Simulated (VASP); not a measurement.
# Ru (P6_3/mmc) under biaxial (0001) strain: normal strain, stress and strain energy with r2SCAN

Ru squeezed by 2 % in its basal plane pushes back with 15.93 GPa, yet stretched by 2 % it pulls with only 12.46 GPa. The thickness hardly notices the difference: it changes by 1.107 % in one case and by −1.083 % in the other. I want to understand how one response can bend while the other stays straight, because strained films are commonly described with constant moduli. The calculation imposes equal strain along both in-plane directions and lets the normal direction relax to zero stress. Strains are measured from the crystal relaxed with r2SCAN, tension is positive, and energies are per atom. I look for the moduli that follow and for the strain at which a constant modulus becomes too crude.

## Systems and settings

The start is an entry of the ASE's table of reference states database. The crystal was relaxed with r2SCAN. Equal strain is imposed in the (0001) plane; the strain along the normal is adjusted until the normal stress vanishes, and the atoms are relaxed with r2SCAN. VASP 6.6.1, plane waves with PAW, cutoff 450 eV, no spin polarisation, no spin-orbit coupling, k mesh 25×25×14, static lattice. The same in all rows: band gap on the k mesh at r2SCAN: 0.000 eV.

Notes on method and selection:

- Runs that did not converge, have known faults or may not be shown are not listed, and runs on Ansatz's PAW sets soft_1 and soft_2 are kept to separate tables.

Columns:

- strain (%): strain in the plane (tension positive).
- normal strain (%): strain along the normal.
- stress (GPa): in-plane stress, tension positive.
- strain energy (meV/atom): energy per atom above the relaxed crystal.

Input lines of one member:

```
PREC = Accurate
ENCUT = 450
EDIFF = 1E-07
NELM = 120
ISMEAR = 1
SIGMA = 0.15
LREAL = .FALSE.
ALGO = Normal
METAGGA = R2SCAN
LASPH = .TRUE.
NBANDS = 20
LORBIT = 11
KPAR = 2
IBRION = 1
NSW = 25
```

Command (options for logging and memory left out): `mpirun -np 2 vasp_std`

## The series

| member | strain (%) | normal strain (%) | stress (GPa) | strain energy (meV/atom) |
| --- | --- | --- | --- | --- |
| −2 % | −2.0 | 1.107 | −15.93 | 26.11 |
| −1.5 % | −1.5 | 0.836 | −11.55 | 14.49 |
| −1 % | −1.0 | 0.560 | −7.46 | 6.40 |
| −0.5 % | −0.5 | 0.280 | −3.63 | 1.61 |
| 0 % | 0.0 | 0.002 | −0.02 | −0.07 |
| +0.5 % | 0.5 | −0.271 | 3.39 | 1.21 |
| +1 % | 1.0 | −0.541 | 6.61 | 5.30 |
| +1.5 % | 1.5 | −0.812 | 9.64 | 12.06 |
| +2 % | 2.0 | −1.083 | 12.46 | 21.35 |

normal strain (%) against strain (%):

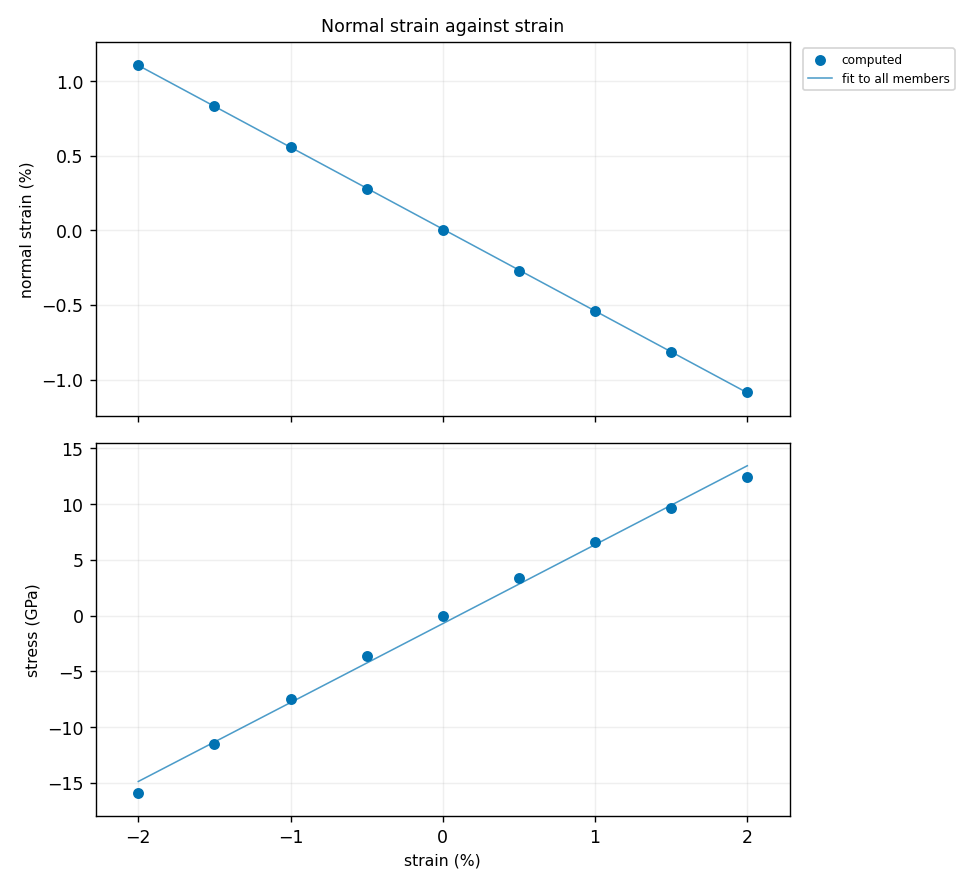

Least-squares fits to the whole series, with x = strain (%); R² and errors in the fitted variable (y, or ln y where the fit is in ln y):

| y | members | fit | R² | rms residual | leave-one-out rms | the same for the mean of the others |
| --- | --- | --- | --- | --- | --- | --- |
| normal strain (%) | 9 | y = 0.008667 − 0.5486 x | 1.00 | 0.0040 | 0.0052 | 0.80 |
| stress (GPa) | 9 | y = −0.7211 + 7.076 x | 1.00 | 0.63 | 0.90 | 10 |

## Mechanism

The normal strain falls linearly with the in-plane strain, by about 0.55 % per 1 %. The stress rises throughout the series, but less steeply towards tension. The strain energy is nearly parabolic, with the compressed side higher.

I start from linear elasticity of a hexagonal crystal, with in-plane strain $x$ and normal strain $n$. Zero normal stress requires

$$2C_{13}x + C_{33}n = 0, \qquad n = -r x, \qquad r = 2C_{13}/C_{33}.$$

Putting this $n$ into the in-plane stress gives

$$\sigma = (C_{11}+C_{12})x + C_{13}n = Ax, \qquad A = C_{11}+C_{12}-2C_{13}^2/C_{33}.$$

Symmetry holds the atoms at their sites, so no internal displacement softens these moduli. The ±0.5 % pair gives $A$ = (3.39 + 3.63) / (2 × 0.5) = 7.02 GPa per %, a biaxial modulus of 7.02 × 100 = 702 GPa. The slope of the normal strain, −0.5486, gives $C_{13}/C_{33}$ = 0.5486 / 2 = 0.274. Two combinations follow, not the four separate constants.

A constant $A$ would make the stresses at +2 % and −2 % equal in size. I therefore add the next term,

$$\sigma = Ax + Bx^2.$$

A negative $B$ is what anharmonic bonding leads me to expect: repulsion between neighbouring atoms steepens as they approach, so the crystal stiffens in compression and softens in tension. The normal strain can still stay linear if $C_{13}$ and $C_{33}$ change in nearly the same proportion, since only their ratio enters $r$.

For small strains the work done along the two in-plane directions is

$$u = 2w\int_0^x \sigma\,dx' = w\left(Ax^2 + \tfrac{2}{3}Bx^3\right),$$

where $w$ is the volume per atom in suitable units. The elastic model thus has three parameters, $r$, $A$ and $B$; $w$ only sets the energy scale.

## Testing the model

I fix the model on the members −1 % and +1 %, with $x$ in %:

- $r$ = (0.560 + 0.541) / 2 = 0.5505
- $A$ = (6.61 + 7.46) / 2 = 7.035 GPa per %
- $B$ = (6.61 − 7.46) / 2 = −0.425 GPa per %²; the energy contains two thirds of it, in size 2 × 0.425 / 3 = 0.2833

I count energies from the 0 % row, which means adding 0.07 meV to each table value. The mean for the pair is then (5.30 + 6.40) / 2 + 0.07 = 5.92 meV, and $w$ = 5.92 / 7.035 = 0.8415 meV per GPa and %. With strain as a fraction this is 0.8415 × 100 = 84.15 meV per GPa. Since 1 GPa Å³ equals 6.242 meV, it corresponds to 84.15 / 6.242 = 13.5 Å³ per atom, in line with the roughly 14 Å³ expected for this metal.

**Member +2 %**

- Normal strain: −0.5505 × 2 = −1.101 %; table −1.083 %.
- Stress: 7.035 × 2 − 0.425 × 4 = 12.37 GPa; table 12.46 GPa.
- Energy: 0.8415 × (7.035 × 4 − 0.2833 × 8) = 21.77 meV; table 21.35 + 0.07 = 21.42 meV.

**Member −2 %**

- Normal strain: 0.5505 × 2 = 1.101 %; table 1.107 %.
- Stress: −7.035 × 2 − 0.425 × 4 = −15.77 GPa; table −15.93 GPa.
- Energy: 0.8415 × (7.035 × 4 + 0.2833 × 8) = 25.59 meV; table 26.11 + 0.07 = 26.18 meV.

**Member +0.5 %**

The square and cube of the strain are 0.5 × 0.5 = 0.25 and 0.5 × 0.25 = 0.125.

- Normal strain: −0.5505 × 0.5 = −0.275 %; table −0.271 %.
- Stress: 7.035 × 0.5 − 0.425 × 0.25 = 3.41 GPa; table 3.39 GPa.
- Energy: 0.8415 × (7.035 × 0.25 − 0.2833 × 0.125) = 1.45 meV; table 1.21 + 0.07 = 1.28 meV.

## Members off the line

Largest departures from the fit to the whole series:

| member | normal strain (%) | fit | computed − fit | in rms residuals |
| --- | --- | --- | --- | --- |
| 0 % | 0.002 | 0.009 | −0.007 | 1.6 |
| +2 % | −1.083 | −1.089 | +0.006 | 1.4 |
| +0.5 % | −0.271 | −0.266 | −0.005 | 1.3 |
| −1.5 % | 0.836 | 0.832 | +0.004 | 1.1 |

The constant modulus fails first. With $B$ left out, the stress at ±2 % would have the size 7.035 × 2 = 14.07 GPa, which is 14.07 − 12.46 = 1.61 GPa too large in tension and 15.93 − 14.07 = 1.86 GPa too small in compression. The straight-line fit hides this curvature in its intercept of −0.7211 GPa, whereas the unstrained crystal carries only −0.02 GPa.

With $B$ included, the computed stress still exceeds the model in size at both ends, by 0.09 GPa at +2 % and 0.16 GPa at −2 %. Here the assumption that the series stops at $x^2$ begins to fail.

The energy departs differently. Stretched members lie below the model and compressed ones above it, already by 0.17 meV at ±0.5 %. A term linear in strain does this, as if a stress of about −0.2 GPa were missing from the stress column. The likely cause is the finite plane-wave cutoff: a larger cell holds more plane waves, which lowers its energy a little, and the calculated stress does not include this effect. The −0.07 meV of the unstrained row probably has a related origin, a change of plane-wave set after the cell relaxation.

## Closing remarks

Between −2 % and +2 % the normal strain is linear for practical purposes. A constant biaxial modulus misses the stress by 3 to 4 % at ±0.5 %, about 6 % at ±1 % and 12 to 13 % at ±2 %; one quadratic term brings this down to about 1 %. If an error of 5 % is tolerable, the constant modulus still serves at ±0.5 % but no longer at ±1 %.

The largest omitted effect is plastic flow. In bulk Ru, dislocations would relieve most of the stress at the ends of the series, a reduction of roughly 10 GPa, comparable with the stresses themselves. The functional matters less: r2SCAN tends to make such metals too stiff, by roughly 5 %, which still exceeds the misses of the quadratic model.

[Logs are printed without paths, hosts, clocks, repeated set-up lines and the standing remarks that a program may print on its own settings, such as how far it seeks lower states.]
